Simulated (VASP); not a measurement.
# Pressure, band gap and energy of antiferromagnetic MnS (R-3m) against cell volume with PBE+U and D3(BJ)

Squeezing a semiconductor pushes its ions together and strengthens their bonding, and yet the gap of MnS becomes smaller in this series when the cell is compressed. A second oddity is that the stress tensor still reports a pull inward at the volume where the fitted energy is lowest. I want both understood before I use such a curve to judge how an antiferromagnetic semiconductor responds to pressure, or how far its gap may move under even compression. I follow the calculated pressure, energy and gap as the cell is scaled evenly. Volume changes are counted from the minimum of the energy fit, energies from the lowest row, and positive pressure means a compressed cell.

## Method

A cell from a diffraction database, relaxed at this level and then scaled evenly, fractional positions kept. VASP 6.6.1, plane waves with PAW, PBE+U (U = 3 eV on Mn d) + D3(BJ), cutoff 400 eV, k mesh 8×8×8, collinear spin in antiferromagnetic order, no spin-orbit coupling, static lattice. A Birch-Murnaghan fit to the energies has its minimum at 17.18 Å³ per atom.

Notes on method and selection:

- The pressure is that of a finite plane-wave basis, so it need not vanish exactly at the minimum of the energy.
- Only series whose fit has its minimum inside the range and an error under 0.5 meV per atom are shown.
- Where rows or columns differ in functional or spin-orbit coupling, non-spherical gradient terms in the PAW spheres (LASPH) may be on in some and off in others.
- Runs that did not converge, have known faults or may not be shown are not listed, and runs on Ansatz's PAW sets soft_1 and soft_2 are kept to separate tables.

Columns:

- volume change (%): volume relative to the fitted equilibrium volume.
- pressure (GPa): pressure from the stress tensor (positive: compressed).
- energy (meV/atom): energy per atom above the lowest point of the series.
- gap (eV): smallest gap on the k mesh.

## Results

| member | volume change (%) | pressure (GPa) | energy (meV/atom) | gap (eV) |
| --- | --- | --- | --- | --- |
| 16.04 Å³ | −6.61 | 5.88 | 21.7 | 1.693 |
| 16.39 Å³ | −4.62 | 3.70 | 10.2 | 1.771 |
| 16.73 Å³ | −2.64 | ? | ? | ? |
| 17.07 Å³ | −0.65 | −0.06 | 0.0 | 1.912 |
| 17.41 Å³ | 1.34 | −1.68 | 0.6 | 1.975 |
| 17.75 Å³ | 3.33 | −3.14 | 4.5 | 2.033 |
| 18.09 Å³ | 5.31 | −4.48 | 11.4 | 2.084 |

Cells marked ? are withheld until the estimate has been made.

pressure (GPa) against volume change (%), members shown:

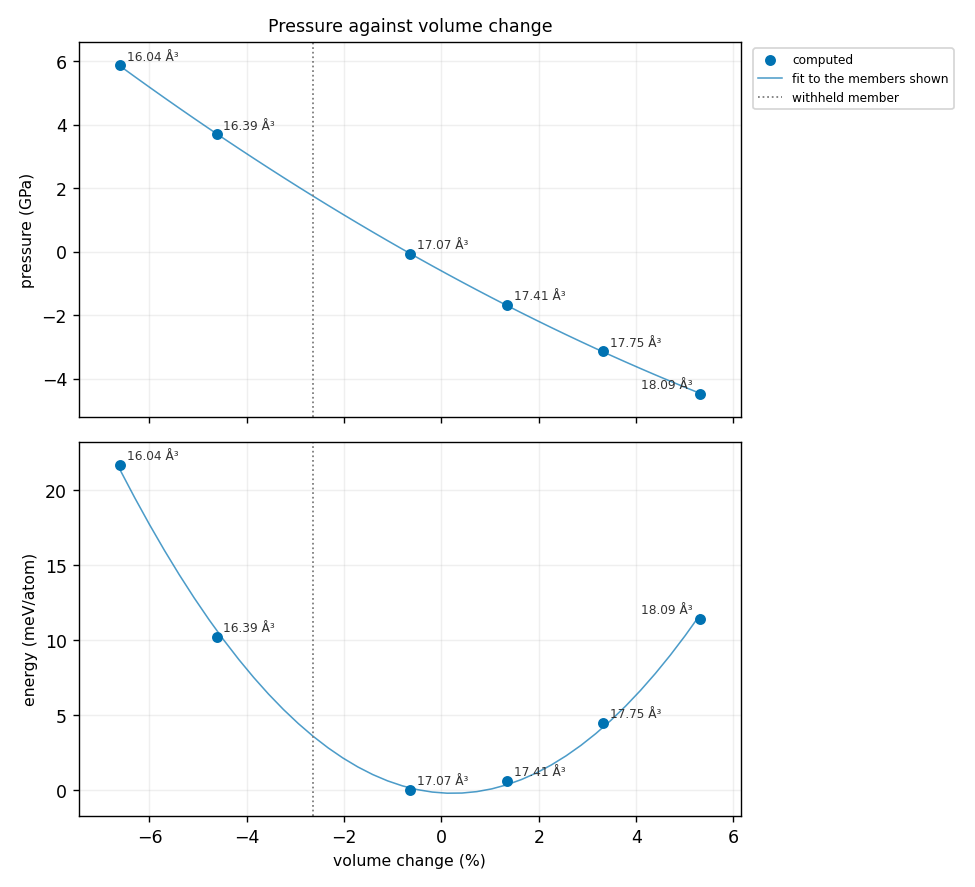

Least-squares fits to the members shown, with x = volume change (%); R² and errors in the fitted variable (y, or ln y where the fit is in ln y):

| y | members | fit | R² | rms residual | leave-one-out rms | the same for the mean of the others |
| --- | --- | --- | --- | --- | --- | --- |
| pressure (GPa) | 6 | y = −0.6044 − 0.8388 x + 0.02114 x² | 1.00 | 0.017 | 0.050 | 4.4 |
| energy (meV/atom) | 6 | y = −0.1947 − 0.2155 x + 0.4614 x² | 1.00 | 0.30 | 0.85 | 9.0 |

## Mechanism

Pressure falls at each step of expansion among the rows shown, and it falls more slowly as the cell grows. Between the two smallest cells the slope is (3.70 − 5.88) / (−4.62 + 6.61) = −1.10 GPa per percent of volume; between the two largest it is (−4.48 + 3.14) / 1.98 = −0.68 GPa per percent. The cause is the short range of the repulsion between overlapping electron shells, which stiffens the crystal quickly as Mn and S approach, while the attraction that resists stretching varies more gently. The energy has the same asymmetry: 21.7 meV per atom at −6.61 % against 11.4 at +5.31 %. Divided by the square of the volume change in percent, these are 21.7 / (6.61 × 6.61) = 0.50 and 11.4 / (5.31 × 5.31) = 0.40.

The quadratic fit puts the pressure at −0.60 GPa where the volume change is zero. This is the Pulay stress of a finite basis. The stress tensor describes a deformation with a fixed set of plane waves, whose effective cutoff drops as the cell expands, and this adds a spurious inward pull. The energies confirm the size. From 17.41 to 17.75 Å³ they give −(4.5 − 0.6) / (17.75 − 17.41) × 0.1602 = −1.84 GPa, where 0.1602 converts meV/Å³ to GPa, while the two stress pressures average (−1.68 − 3.14) / 2 = −2.41 GPa. The difference is −2.41 + 1.84 = −0.57 GPa.

The gap widens from 1.693 to 2.084 eV across the series. Its slope drops from (1.771 − 1.693) / (−4.62 + 6.61) = 0.039 eV per percent at the compressed end to (2.084 − 2.033) / (5.31 − 3.33) = 0.026 at the expanded end. A likely cause is that shorter Mn–S distances increase the overlap of S 3p with Mn 3d and broaden the bands on both sides of the gap, which brings their edges together. A conduction edge of mainly Mn 4s character would usually rise on compression, so I suspect a sizeable share of empty Mn 3d there, though the columns do not give orbital weights.

## An estimate before looking

Plain estimates from the members shown:

- 16.73 Å³, fit at x = −2.64: 1.76 GPa
- 16.73 Å³, straight-line interpolation between 16.39 Å³ and 17.07 Å³: w = (−2.64 − (−4.62)) / (−0.65 − (−4.62)) = 0.499, so 3.70 + 0.499 × (−0.06 − 3.70) = 1.82 GPa

The straight line between the neighbours, 1.82 GPa, must be too high because the pressure curve bends upward. The quadratic fit, 1.76 GPa, includes that bend but not its growth on compression, and it lies slightly above the calculated pressure at both neighbouring volumes. I therefore prefer a cubic through the two nearest members on each side.

The volumes are almost evenly spaced, so the cubic at the middle point reduces to

$$P = \frac{4(P_{-1}+P_{+1})-(P_{-2}+P_{+2})}{6},$$

where the subscripts count steps in volume. This gives [4 × (3.70 − 0.06) − (5.88 − 1.68)] / 6 = 1.727 GPa.

I tried the same kind of cubic on 17.07 Å³, using the two shown members on each side. It gives −0.2 × 5.88 + 0.5 × 3.70 + 1.0 × (−1.68) − 0.3 × (−3.14) = −0.064 GPa, against −0.06 in the table.

I add no shift for chemistry or magnetism. The gap rises smoothly across the missing volume, with no sign of a change of electronic state, and the basis-set offset is already contained in the four pressures used. The trial misses by less than 0.01 GPa; I take 0.01 GPa as the standard deviation, to leave room for rounding and small irregularities in the stress.

**Committed estimate, 16.73 Å³: pressure = 1.73 ± 0.01 GPa.**

## Check

| member | volume change (%) | pressure (GPa) | energy (meV/atom) | gap (eV) |
| --- | --- | --- | --- | --- |
| 16.73 Å³ | −2.64 | 1.72 | 3.1 | 1.844 |

| member | estimate | pressure (GPa) | computed | estimate − computed | miss in error bars |
| --- | --- | --- | --- | --- | --- |
| 16.73 Å³ | committed | 1.73 | 1.72 | +0.01 | 1.0 |
| 16.73 Å³ | fit | 1.76 | 1.72 | +0.04 |  |
| 16.73 Å³ | interpolation | 1.82 | 1.72 | +0.10 |  |

pressure (GPa) against volume change (%):

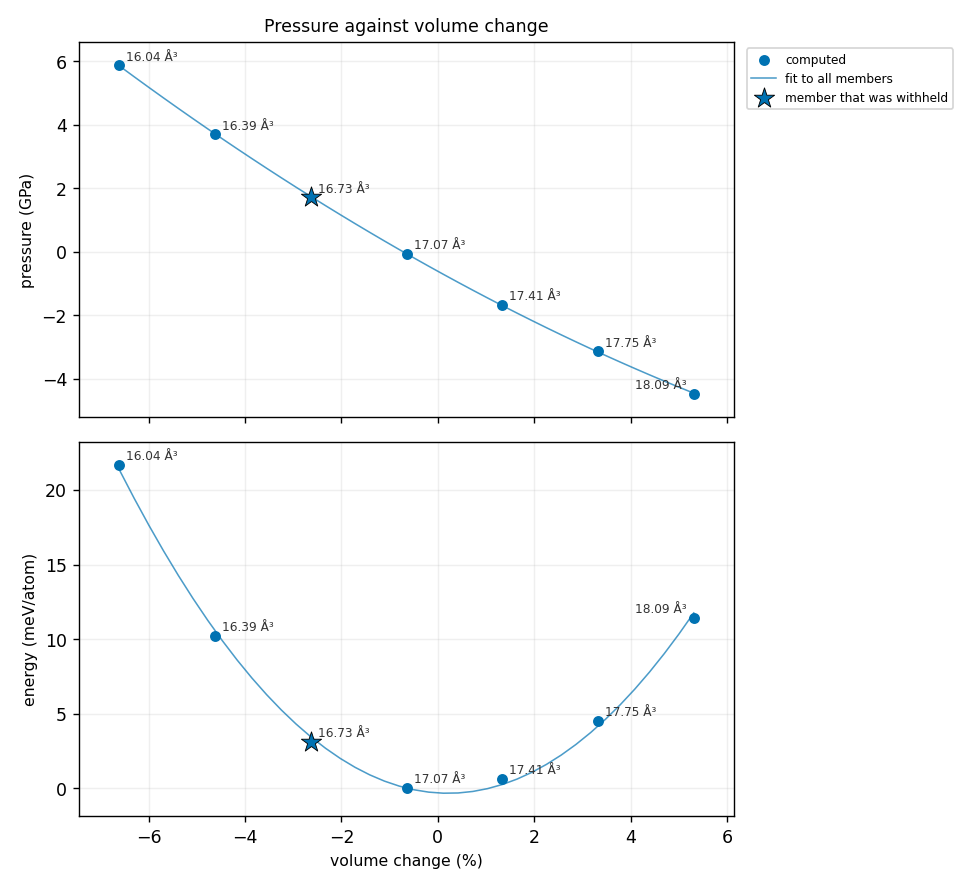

The computed pressure at 16.73 Å³ is 1.72 GPa against my 1.73 ± 0.01 GPa, so the miss equals one error bar. The quadratic fit was 0.04 GPa too high and the straight line 0.10 GPa too high. The argument that held is that the upward bend of the pressure curve itself grows on compression. The slope is −1.00 GPa per percent from 16.39 to 16.73 Å³ and −0.89 from there to 17.07 Å³. At the expanded end the last two slopes, (−3.14 + 1.68) / (3.33 − 1.34) = −0.73 and −0.68, differ by only about half as much.

This success shows that the curve is smooth, which any gradual stiffening would give, so it is no separate test of the short-range repulsion I hold responsible. The new energy does test the basis-set offset. Between 16.39 and 16.73 Å³ the energies give (10.2 − 3.1) / (16.73 − 16.39) × 0.1602 = 3.35 GPa, while the two stress pressures average (3.70 + 1.72) / 2 = 2.71 GPa. The difference, 2.71 − 3.35 = −0.64 GPa, is close to the −0.57 GPa found on the expanded side.

## Departures from the trend

Least-squares fits to the whole series, with x = volume change (%); R² and errors in the fitted variable (y, or ln y where the fit is in ln y):

| y | members | fit | R² | rms residual | leave-one-out rms | the same for the mean of the others |
| --- | --- | --- | --- | --- | --- | --- |
| pressure (GPa) | 7 | y = −0.6145 − 0.8377 x + 0.02148 x² | 1.00 | 0.020 | 0.052 | 4.0 |
| energy (meV/atom) | 7 | y = −0.3271 − 0.2009 x + 0.4658 x² | 1.00 | 0.32 | 0.85 | 8.3 |

Largest departures from the fit to the whole series:

| member | pressure (GPa) | fit | computed − fit | in rms residuals |
| --- | --- | --- | --- | --- |
| 16.73 Å³ | 1.72 | 1.75 | −0.03 | 1.3 |
| 17.75 Å³ | −3.14 | −3.17 | +0.03 | 1.3 |
| 18.09 Å³ | −4.48 | −4.46 | −0.02 | 1.1 |
| 16.04 Å³ | 5.88 | 5.86 | +0.02 | 0.9 |

No volume stands out, since the largest departures from the quadratic are 0.03 GPa in a series that spans more than 10 GPa. Their signs do form a pattern: positive at 16.04 Å³, negative at 16.73 Å³, positive at 17.75 Å³ and negative at 18.09 Å³. That is what a quadratic leaves behind when the curve has a small cubic term, the same term that made my estimate better than the fit.

## Closing remarks

From −6.61 to +5.31 % in volume, pressure falls and the gap widens at every step. A missing volume inside this range can be estimated to about 0.01 GPa with a local cubic where two members lie on each side.

The fitted slope at zero volume change gives a bulk modulus of 100 × 0.8377 = 84 GPa. For the gap, which is indirect at every volume, the rows at 16.73 and 17.41 Å³ give (1.844 − 1.975) / (1.72 + 1.68) = −0.039 eV per GPa. The basis-set offset largely cancels in such differences, but a single tabulated pressure should be raised by about 0.6 GPa before it is used.

The main omission for the gap is electronic exchange and correlation beyond PBE+U. At this modest U the gap is probably too small, and the error may well exceed the change across the series, 2.084 − 1.693 = 0.391 eV. I would therefore use its shift with pressure and not its absolute value.
